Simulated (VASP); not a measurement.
# Biaxial (001) strain of body-centred cubic tungsten with r2SCAN: normal strain, stress, strain energy and elastic moduli

Linear elasticity is usually trusted for strains up to about 1 %. The series tests this rule for tungsten strained equally along both axes of the (001) plane, with the normal free of stress. The brief is a tungsten film, 10 nm thick before straining, that serves as an elastic energy store. It must hold at least 1 J/m², its in-plane stress may not exceed 10 GPa in either sense, and Hooke's law with the small-strain modulus must give that stress to within 5 %. Among the rows that pass, the one with the most stored energy is preferred. These limits are design choices. Strains and energies are measured from the relaxed cubic crystal at the same level, and tension counts as positive.

## Computational details

The start is an entry of the ASE's table of reference states database. The crystal was relaxed with r2SCAN. Equal strain is imposed in the (001) plane; the strain along the normal is adjusted until the normal stress vanishes, and the atoms are relaxed with r2SCAN. VASP 6.6.1, plane waves with PAW, cutoff 450 eV, no spin polarisation, no spin-orbit coupling, k mesh 26×26×26, static lattice. The same in all rows: band gap on the k mesh at r2SCAN: 0.000 eV.

Notes on method and selection:

- Runs that did not converge, have known faults or may not be shown are not listed, and runs on Ansatz's PAW sets soft_1 and soft_2 are kept to separate tables.

Columns:

- strain (%): strain in the plane (tension positive).
- normal strain (%): strain along the normal.
- stress (GPa): in-plane stress, tension positive.
- strain energy (meV/atom): energy per atom above the relaxed crystal.

## Computed values

| member | strain (%) | normal strain (%) | stress (GPa) | strain energy (meV/atom) |
| --- | --- | --- | --- | --- |
| −2 % | −2.0 | 1.593 | −12.62 | 24.70 |
| −1.5 % | −1.5 | 1.170 | −9.32 | 13.77 |
| −1 % | −1.0 | 0.767 | −6.11 | 6.08 |
| −0.5 % | −0.5 | 0.377 | −2.99 | 1.52 |
| 0 % | 0.0 | −0.007 | 0.02 | 0.00 |
| +0.5 % | 0.5 | −0.379 | 2.96 | 1.44 |
| +1 % | 1.0 | −0.745 | 5.80 | 5.76 |
| +1.5 % | 1.5 | −1.099 | 8.56 | 12.90 |
| +2 % | 2.0 | −1.441 | 11.23 | 22.75 |

normal strain (%) against strain (%):

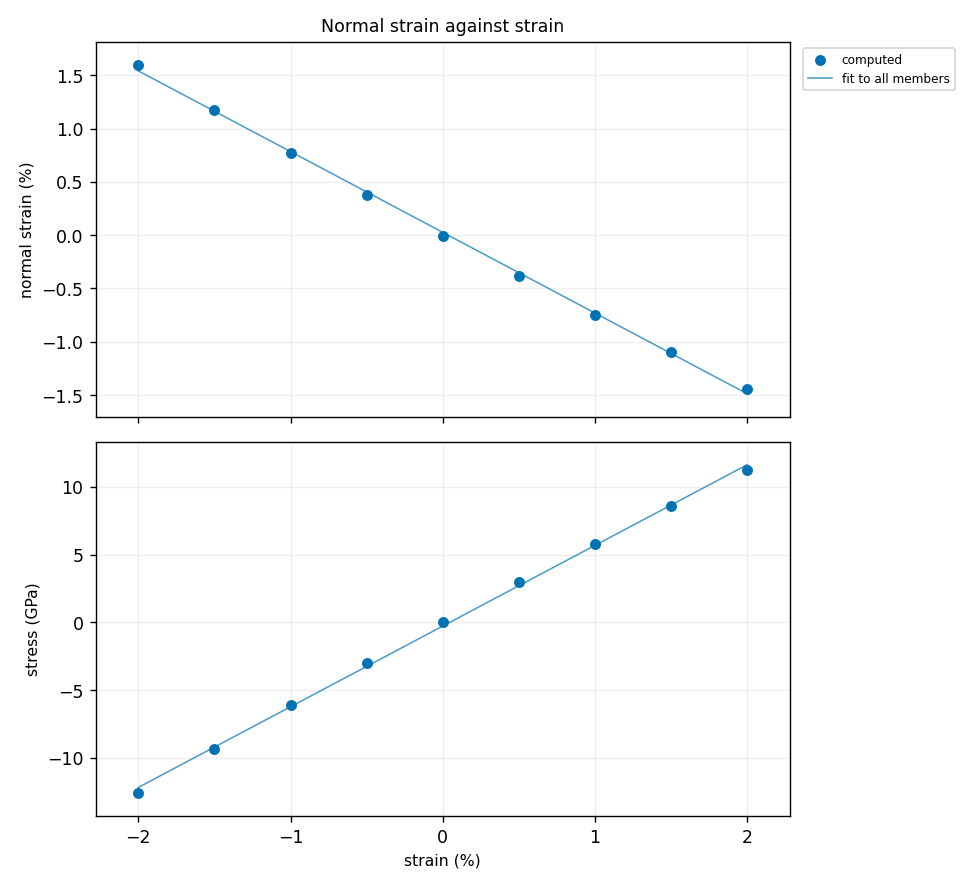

Least-squares fits to the whole series, with x = strain (%); R² and errors in the fitted variable (y, or ln y where the fit is in ln y):

| y | members | fit | R² | rms residual | leave-one-out rms | the same for the mean of the others |
| --- | --- | --- | --- | --- | --- | --- |
| normal strain (%) | 9 | y = 0.02622 − 0.7574 x | 1.00 | 0.030 | 0.044 | 1.1 |
| stress (GPa) | 9 | y = −0.2744 + 5.960 x | 1.00 | 0.26 | 0.38 | 8.7 |

## The trend and its physics

Stretching the plane lengthens the nearest-neighbour bonds, which run obliquely to it, and the crystal shortens along the normal to recover part of that length. Between −0.5 and +0.5 % the normal strain changes by (−0.379 − 0.377) / 1.0 = −0.756 % per % of in-plane strain. Constant volume would require −2, so the volume grows under tension. The stress rises by (2.96 + 2.99) / 1.0 = 5.95 GPa per %, which gives a biaxial modulus $M$ of 5.95 × 100 = 595 GPa.

For a cubic crystal with a stress-free normal,

$$\frac{\varepsilon_\perp}{\varepsilon} = -\frac{2C_{12}}{C_{11}}, \qquad M = C_{11} + C_{12} - \frac{2C_{12}^2}{C_{11}}.$$

Hence $C_{12}/C_{11}$ = 0.756 / 2 = 0.378, $C_{11}$ = 595 / (1 + 0.378 − 2 × 0.378²) = 545 GPa and $C_{12}$ = 0.378 × 545 = 206 GPa. The bulk modulus is (545 + 2 × 206) / 3 = 319 GPa. The shear constant $C_{44}$ does not enter this deformation.

The response stiffens under compression and softens under tension. From one end of the series to the other, the slope between neighbouring rows falls steadily from (12.62 − 9.32) / 0.5 = 6.60 to (11.23 − 8.56) / 0.5 = 5.34 GPa per %. With $\varepsilon$ in % and $\sigma$ in GPa, the rows follow

$$\sigma = 0.02 + 5.95\,\varepsilon - 0.18\,\varepsilon^2$$

with a typical miss of 0.02 GPa, against 0.26 GPa for the straight line. The negative quadratic term is the expected sign of anharmonic bonding, in which repulsion grows faster on shortening than attraction does on stretching. Logarithmic strain would remove only 595 × 0.01² / 2 = 0.03 GPa of the 0.18 GPa at 1 %.

## Where the trend breaks

Largest departures from the fit to the whole series:

| member | normal strain (%) | fit | computed − fit | in rms residuals |
| --- | --- | --- | --- | --- |
| −2 % | 1.593 | 1.541 | +0.052 | 1.7 |
| +2 % | −1.441 | −1.489 | +0.048 | 1.6 |
| 0 % | −0.007 | 0.026 | −0.033 | 1.1 |
| −0.5 % | 0.377 | 0.405 | −0.028 | 0.9 |

The listed departures in normal strain are positive at both ends and negative near the centre. This is the pattern of a straight line laid through a smooth curve, and it gives no reason to distrust any row. The stress curves the opposite way, and a straight line laid through it acquires the intercept of −0.2744 GPa, which is therefore not a residual stress.

The true residual appears in the unstrained row. The relaxed reference keeps a slight tension, so the crystal shortens by 0.007 % once its normal is freed. That corresponds to an initial tension of about 545 × 0.00007 = 0.04 GPa, of which 0.04 × (1 − 0.378) = 0.02 GPa should remain in the plane, as tabulated. This offset is negligible at the larger strains.

## Meeting the brief

The stored energy per unstrained area follows from the energy per atom $E$, the volume per atom $V$ and the film thickness $t$ as $w = Et/V$. The volume is not tabulated, but the small-strain relation $E = VM\varepsilon^2$ supplies it. The mean energy at ±1 % is (6.08 + 5.76) / 2 = 5.92 meV/atom. With 1 eV/Å³ = 160.2 GPa, $V$ = 5.92 × 160.2 / (1000 × 595 × 0.01²) = 15.9 Å³, where the factor 1000 converts meV to eV.

At −1 % the energy density is 6.08 × 160.2 / (1000 × 15.9) = 0.061 GPa. Since 1 GPa × 1 nm = 1 J/m², a thickness of 10 nm gives 0.061 × 10 = 0.61 J/m², which is too little. The +1 % row and the rows closer to zero store still less. Both 2 % rows exceed the stress limit, with magnitudes of 12.62 and 11.23 GPa.

The two 1.5 % rows remain. Hooke's law gives 5.95 × 1.5 = 8.93 GPa for both. The computed magnitude is 9.32 / 8.93 = 1.04 times this under compression and 8.56 / 8.93 = 0.96 times under tension, so both meet the 5 % condition. Their stored energies are:

- −1.5 %: 13.77 × 160.2 / (1000 × 15.9) = 0.139 GPa, or 0.139 × 10 = 1.39 J/m²
- +1.5 %: 12.90 × 160.2 / (1000 × 15.9) = 0.130 GPa, or 0.130 × 10 = 1.30 J/m²

The pick is −1.5 %, with +1.5 % as runner-up. Taken with the unstrained thickness, the force of the compressed film on its clamped edge is 9.32 × 10 = 93 N/m. The film thickens by 1.170 × 10 / 100 = 0.12 nm.

Elastic moduli of metals at this level carry an error of roughly 5 to 10 %, and no measured modulus is compared here. If the true moduli were 10 % lower, the pick would still store 0.9 × 1.39 = 1.25 J/m². An error in the other direction is more serious, because a stress larger by a factor of 10 / 9.32 = 1.07 would disqualify the pick. The runner-up tolerates a factor of 10 / 8.56 = 1.17 and would then take its place.

## Closing remarks

The rule of thumb survives. Hooke's law with the small-strain modulus misses the stress by less than 3 % at ±1 %, but by about 6 % at ±2 %. Its error changes sign with the strain, giving too small a magnitude under compression and too large a one under tension. Moduli are therefore best taken from pairs of rows at opposite strains, where the quadratic term cancels.

The largest omitted effect is plastic flow. A one-atom cell contains no dislocations, whereas ordinary metals yield at roughly 1 GPa or less. Yielding would lower the stress magnitude and could remove most of the 9 GPa on which the selected film relies. The estimate also applies bulk values to a thin film, without surface effects, and assumes that the compressed film is held flat, since a free-standing one could buckle and release its energy.
